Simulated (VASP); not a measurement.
# Normal strain, stress and strain energy of CdTe (F-43m) under biaxial (111) strain, LDA

Cadmium and tellurium form a zinc-blende crystal in which each atom has four neighbours of the other kind, held by polar covalent bonds. Every member of the series is this same compound; only the strain imposed in the (111) plane differs. The question is how the crystal responds along the normal, what stress and energy the strain costs, which elastic moduli follow, and where proportionality begins to fail. This matters for CdTe films in solar cells and for buffer layers under infrared detectors, where a mismatched substrate imposes the in-plane lattice spacing. The calculations use LDA for a static lattice. Strains are counted from the cell obtained in a second relaxation, tension is positive, and the energy per atom is counted from the relaxed crystal.

## Systems and settings

The start is a typed prototype cell. The crystal was relaxed with LDA. Equal strain is imposed in the (111) plane; the strain along the normal is adjusted until the normal stress is close to zero, and the atoms are relaxed with LDA. VASP 6.6.1, plane waves with PAW, cutoff 450 eV, no spin polarisation, no spin-orbit coupling, k mesh 8×8×8, static lattice.

Notes on method and selection:

- Runs that did not converge, have known faults or may not be shown are not listed, and runs on Ansatz's PAW sets soft_1 and soft_2 are kept to separate tables.

Columns:

- strain (%): strain in the plane (tension positive).
- gap (eV): band gap on the k mesh at LDA.
- normal strain (%): strain along the normal.
- stress (GPa): in-plane stress, tension positive.
- strain energy (meV/atom): energy per atom above the relaxed crystal.

## Data

| member | strain (%) | gap (eV) | normal strain (%) | stress (GPa) | strain energy (meV/atom) |
| --- | --- | --- | --- | --- | --- |
| −2 % | −2.0 | 0.620 | ? | ? | ? |
| −1.5 % | −1.5 | 0.632 | 1.317 | −1.228 | 4.184 |
| −1 % | −1.0 | 0.639 | 0.880 | −0.815 | 1.951 |
| −0.5 % | −0.5 | 0.643 | 0.445 | −0.396 | 0.5689 |
| 0 % | 0.0 | 0.644 | 0.000 | −0.003 | 0.02313 |
| +0.5 % | 0.5 | 0.594 | −0.411 | 0.396 | 0.2951 |
| +1 % | 1.0 | 0.547 | −0.848 | 0.775 | 1.372 |
| +1.5 % | 1.5 | 0.505 | −1.263 | 1.159 | 3.247 |
| +2 % | 2.0 | 0.469 | −1.665 | 1.535 | 5.910 |

Cells marked ? are withheld until the estimate has been made.

Least-squares fits to the members shown, with x = strain (%); R² and errors in the fitted variable (y, or ln y where the fit is in ln y):

| y | members | fit | R² | rms residual | leave-one-out rms | the same for the mean of the others |
| --- | --- | --- | --- | --- | --- | --- |
| normal strain (%) | 8 | y = 0.02044 − 0.8543 x | 1.00 | 0.013 | 0.020 | 1.1 |
| stress (GPa) | 8 | y = −0.01929 + 0.7886 x | 1.00 | 0.017 | 0.025 | 1.0 |

## Reading the trend

Stretching the plane makes the crystal thinner along the normal, and compressing it makes it thicker. The fitted slope of −0.854 is far from the −2 that would conserve volume, so the strain changes both volume and shape.

Two moduli follow from the fitted slopes. With M the in-plane stress per unit strain (100 × 0.7886 = 78.9 GPa) and R the normal contraction per unit in-plane strain (0.854), cubic elasticity at zero normal stress gives

B = 2M / [3(2 − R)] = 2 × 78.9 / (3 × (2 − 0.854)) = 46 GPa

C₄₄ = M / [2(1 + R)] = 78.9 / (2 × (1 + 0.854)) = 21 GPa.

This C₄₄ includes the shift of the two sublattices against each other, which softens the shear. C₁₁ and C₁₂ enter only as the sum C₁₁ + 2C₁₂ = 3B.

Linear elasticity is a good approximation over the rows shown, but not an exact one. Measured from the zero-strain row, the stress per percent is (1.228 − 0.003) / 1.5 = 0.817 GPa at −1.5 % and (1.535 + 0.003) / 2.0 = 0.769 GPa at +2 %, a difference of 6 %. The same formulas applied to these two rows give B = 49 and 44 GPa, but C₄₄ = 22 and 21 GPa. Compression therefore stiffens the crystal mainly against volume change, as expected when shortened bonds repel more steeply.

The energy averaged over tension and compression, less the zero-strain value, is close to quadratic: ((0.5689 + 0.2951) / 2 − 0.02313) / (0.5 × 0.5) = 1.64 meV/atom per squared percent at 0.5 %, and ((4.184 + 3.247) / 2 − 0.02313) / (1.5 × 1.5) = 1.64 at 1.5 %. The two signs differ, however, with 0.569 meV/atom at −0.5 % against 0.295 at +0.5 %. The energy minimum thus lies slightly on the tensile side, although the stress almost vanishes at zero strain. An incomplete plane-wave basis has this effect: at fixed cutoff a larger cell holds more plane waves, which lowers its energy, while the calculated stress omits that gain. The same effect can explain the 0.023 meV/atom at zero strain, if the energy reference is the slightly larger cell of the first relaxation.

## A prediction

Plain estimates from the members shown:

- −2 %, fit at x = −2.0: 1.729 % (an extrapolation)

The straight-line estimate of 1.729 % is probably too low. At −1.5 % the same line gives 0.0204 + 0.8543 × 1.5 = 1.302 %, already 0.015 below the calculated 1.317 %. The cause is the stiffening against volume change: as B rises faster than C₄₄, the normal strain per unit in-plane strain grows in compression.

The route chosen lets this ratio vary linearly with strain and fixes it by the two outermost rows, where a small leftover normal stress matters least. The ratio is 1.317 / 1.5 = 0.878 at −1.5 % and 1.665 / 2.0 = 0.8325 at +2 %, a change of (0.878 − 0.8325) / 3.5 = 0.013 per percent. At −2 % it becomes 0.878 + 0.5 × 0.013 = 0.8845, and the normal strain is 2.0 × 0.8845 = 1.77 %.

The route can be tried at both ends. From the rows at −1 % and +2 % it gives 1.5 × (0.880 + 0.5 × (0.880 − 0.8325) / 3) = 1.332 % at −1.5 %, which is 0.015 too high. From the rows at −1.5 % and +1.5 % the contraction at +2 % is 2.0 × (1.263 / 1.5 − 0.5 × (1.317 − 1.263) / 1.5 / 3) = 1.672 %, a miss of 0.007. The root mean square of these misses is 0.012, which rounds to an error of 0.01 in the normal strain.

**Committed estimate, −2 %: normal strain = 1.77 ± 0.01 %.**

## Result

| member | strain (%) | gap (eV) | normal strain (%) | stress (GPa) | strain energy (meV/atom) |
| --- | --- | --- | --- | --- | --- |
| −2 % | −2.0 | 0.620 | 1.763 | −1.644 | 7.254 |

| member | estimate | normal strain (%) | computed | estimate − computed | miss in error bars |
| --- | --- | --- | --- | --- | --- |
| −2 % | committed | 1.770 | 1.763 | +0.007 | 0.7 |
| −2 % | fit | 1.729 | 1.763 | −0.034 |  |

normal strain (%) against strain (%):

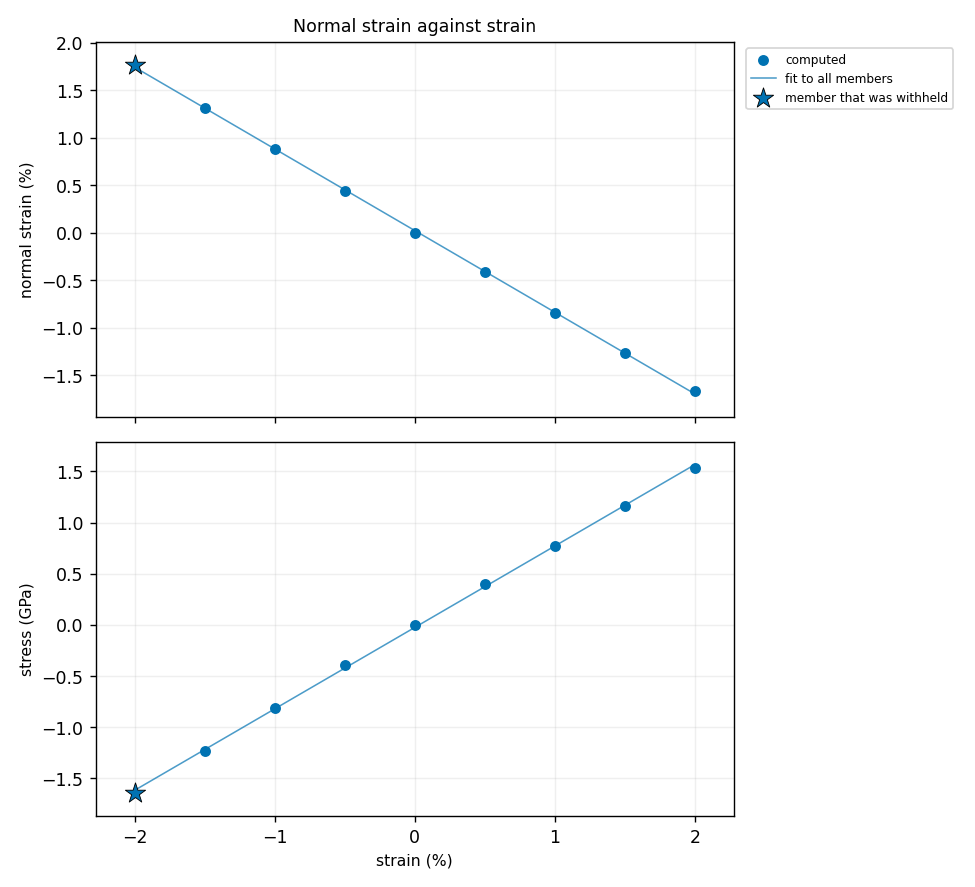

The computed normal strain at −2 % is 1.763 %. The estimate of 1.77 ± 0.01 % is 0.007 too high and inside its error bar; the straight line was 0.034 too low. The upward shift from the line was therefore right in sign and nearly right in size.

The steady growth of the ratio under compression is less well supported. Normal strain per unit in-plane strain is 1.763 / 2.0 = 0.882 at −2 %, against 0.878 at −1.5 % and 0.445 / 0.5 = 0.890 at −0.5 %. The ratio is higher in compression than in tension, but it does not rise regularly from row to row.

The mechanism was also overstated. Part of the asymmetry comes from measuring strain against the original length. With logarithmic strains, ln(1 + strain) with the strain as a fraction, the ratio is −ln(1 + 1.763 / 100) / ln(1 − 2.0 / 100) = 0.865 at −2 % and −ln(1 − 1.665 / 100) / ln(1 + 2.0 / 100) = 0.848 at +2 %. The difference between the two ends falls from 0.882 − 0.833 = 0.049 to 0.865 − 0.848 = 0.017, so only about a third of it is left for a bulk modulus that rises faster than C₄₄.

## Members off the line

Least-squares fits to the whole series, with x = strain (%); R² and errors in the fitted variable (y, or ln y where the fit is in ln y):

| y | members | fit | R² | rms residual | leave-one-out rms | the same for the mean of the others |
| --- | --- | --- | --- | --- | --- | --- |
| normal strain (%) | 9 | y = 0.02422 − 0.8588 x | 1.00 | 0.015 | 0.022 | 1.2 |
| stress (GPa) | 9 | y = −0.02456 + 0.7950 x | 1.00 | 0.020 | 0.028 | 1.2 |

Largest departures from the fit to the whole series:

| member | normal strain (%) | fit | computed − fit | in rms residuals |
| --- | --- | --- | --- | --- |
| +2 % | −1.665 | −1.693 | +0.028 | 1.8 |
| 0 % | 0.000 | 0.024 | −0.024 | 1.6 |
| −2 % | 1.763 | 1.742 | +0.021 | 1.4 |
| +1 % | −0.848 | −0.835 | −0.013 | 0.9 |

The largest departures form a pattern: +2 % and −2 % lie above the line by 0.028 and 0.021, and 0 % lies 0.024 below it. This is what a straight line leaves when the data curve gently upward. The zero-strain row is zero by definition, so its departure is simply the intercept of the fit with the sign reversed.

The size agrees as well. Half the sum of the normal strains at ±2 % is (1.763 − 1.665) / 2 = 0.049, or 0.049 / 4 = 0.012 per squared percent. At ±1.5 % the same step gives (1.317 − 1.263) / 2 / (1.5 × 1.5) = 0.012. The ±0.5 % rows give (0.445 − 0.411) / 2 / (0.5 × 0.5) = 0.068, but at such small strains even a slight normal stress left in the tensile row weighs heavily, so they say little about the curvature.

The +1 % row, 0.013 below the line, lies on the side expected from this curvature. A small compressive stress left along the normal also makes the crystal slightly too thin there.

## Rules of thumb and their limits

Between −2 % and +2 % the normal strain follows −0.857 x + 0.012 x², with both strains in percent. The coefficients come from the two end rows, the linear one as (1.763 + 1.665) / 4 = 0.857; the other rows are met to within 0.015, with a typical miss of 0.01, against an error of 1.2 when each row is estimated by the mean of the others. A further strain inside this range can be estimated about as well. Proportionality fails gradually, not at a threshold: at 2 % the quadratic term is 0.012 × 2 / 0.857 = 0.028 of the linear one, or about 3 %.

For the whole series M is 100 × 0.7950 = 79.5 GPa and R is 0.8588, which give B = 2 × 79.5 / (3 × (2 − 0.8588)) = 46 GPa and C₄₄ = 79.5 / (2 × (1 + 0.8588)) = 21 GPa, as before. In practice, a coherent (111) film under 0.1 % tension carries about 0.1 × 0.795 = 0.08 GPa, or 80 MPa.

The main omission for real films is plastic relaxation: at strains of a percent or more, dislocations in a thick film can remove most of the calculated stress. Thermal softening is smaller, roughly a few percent of the moduli at room temperature.
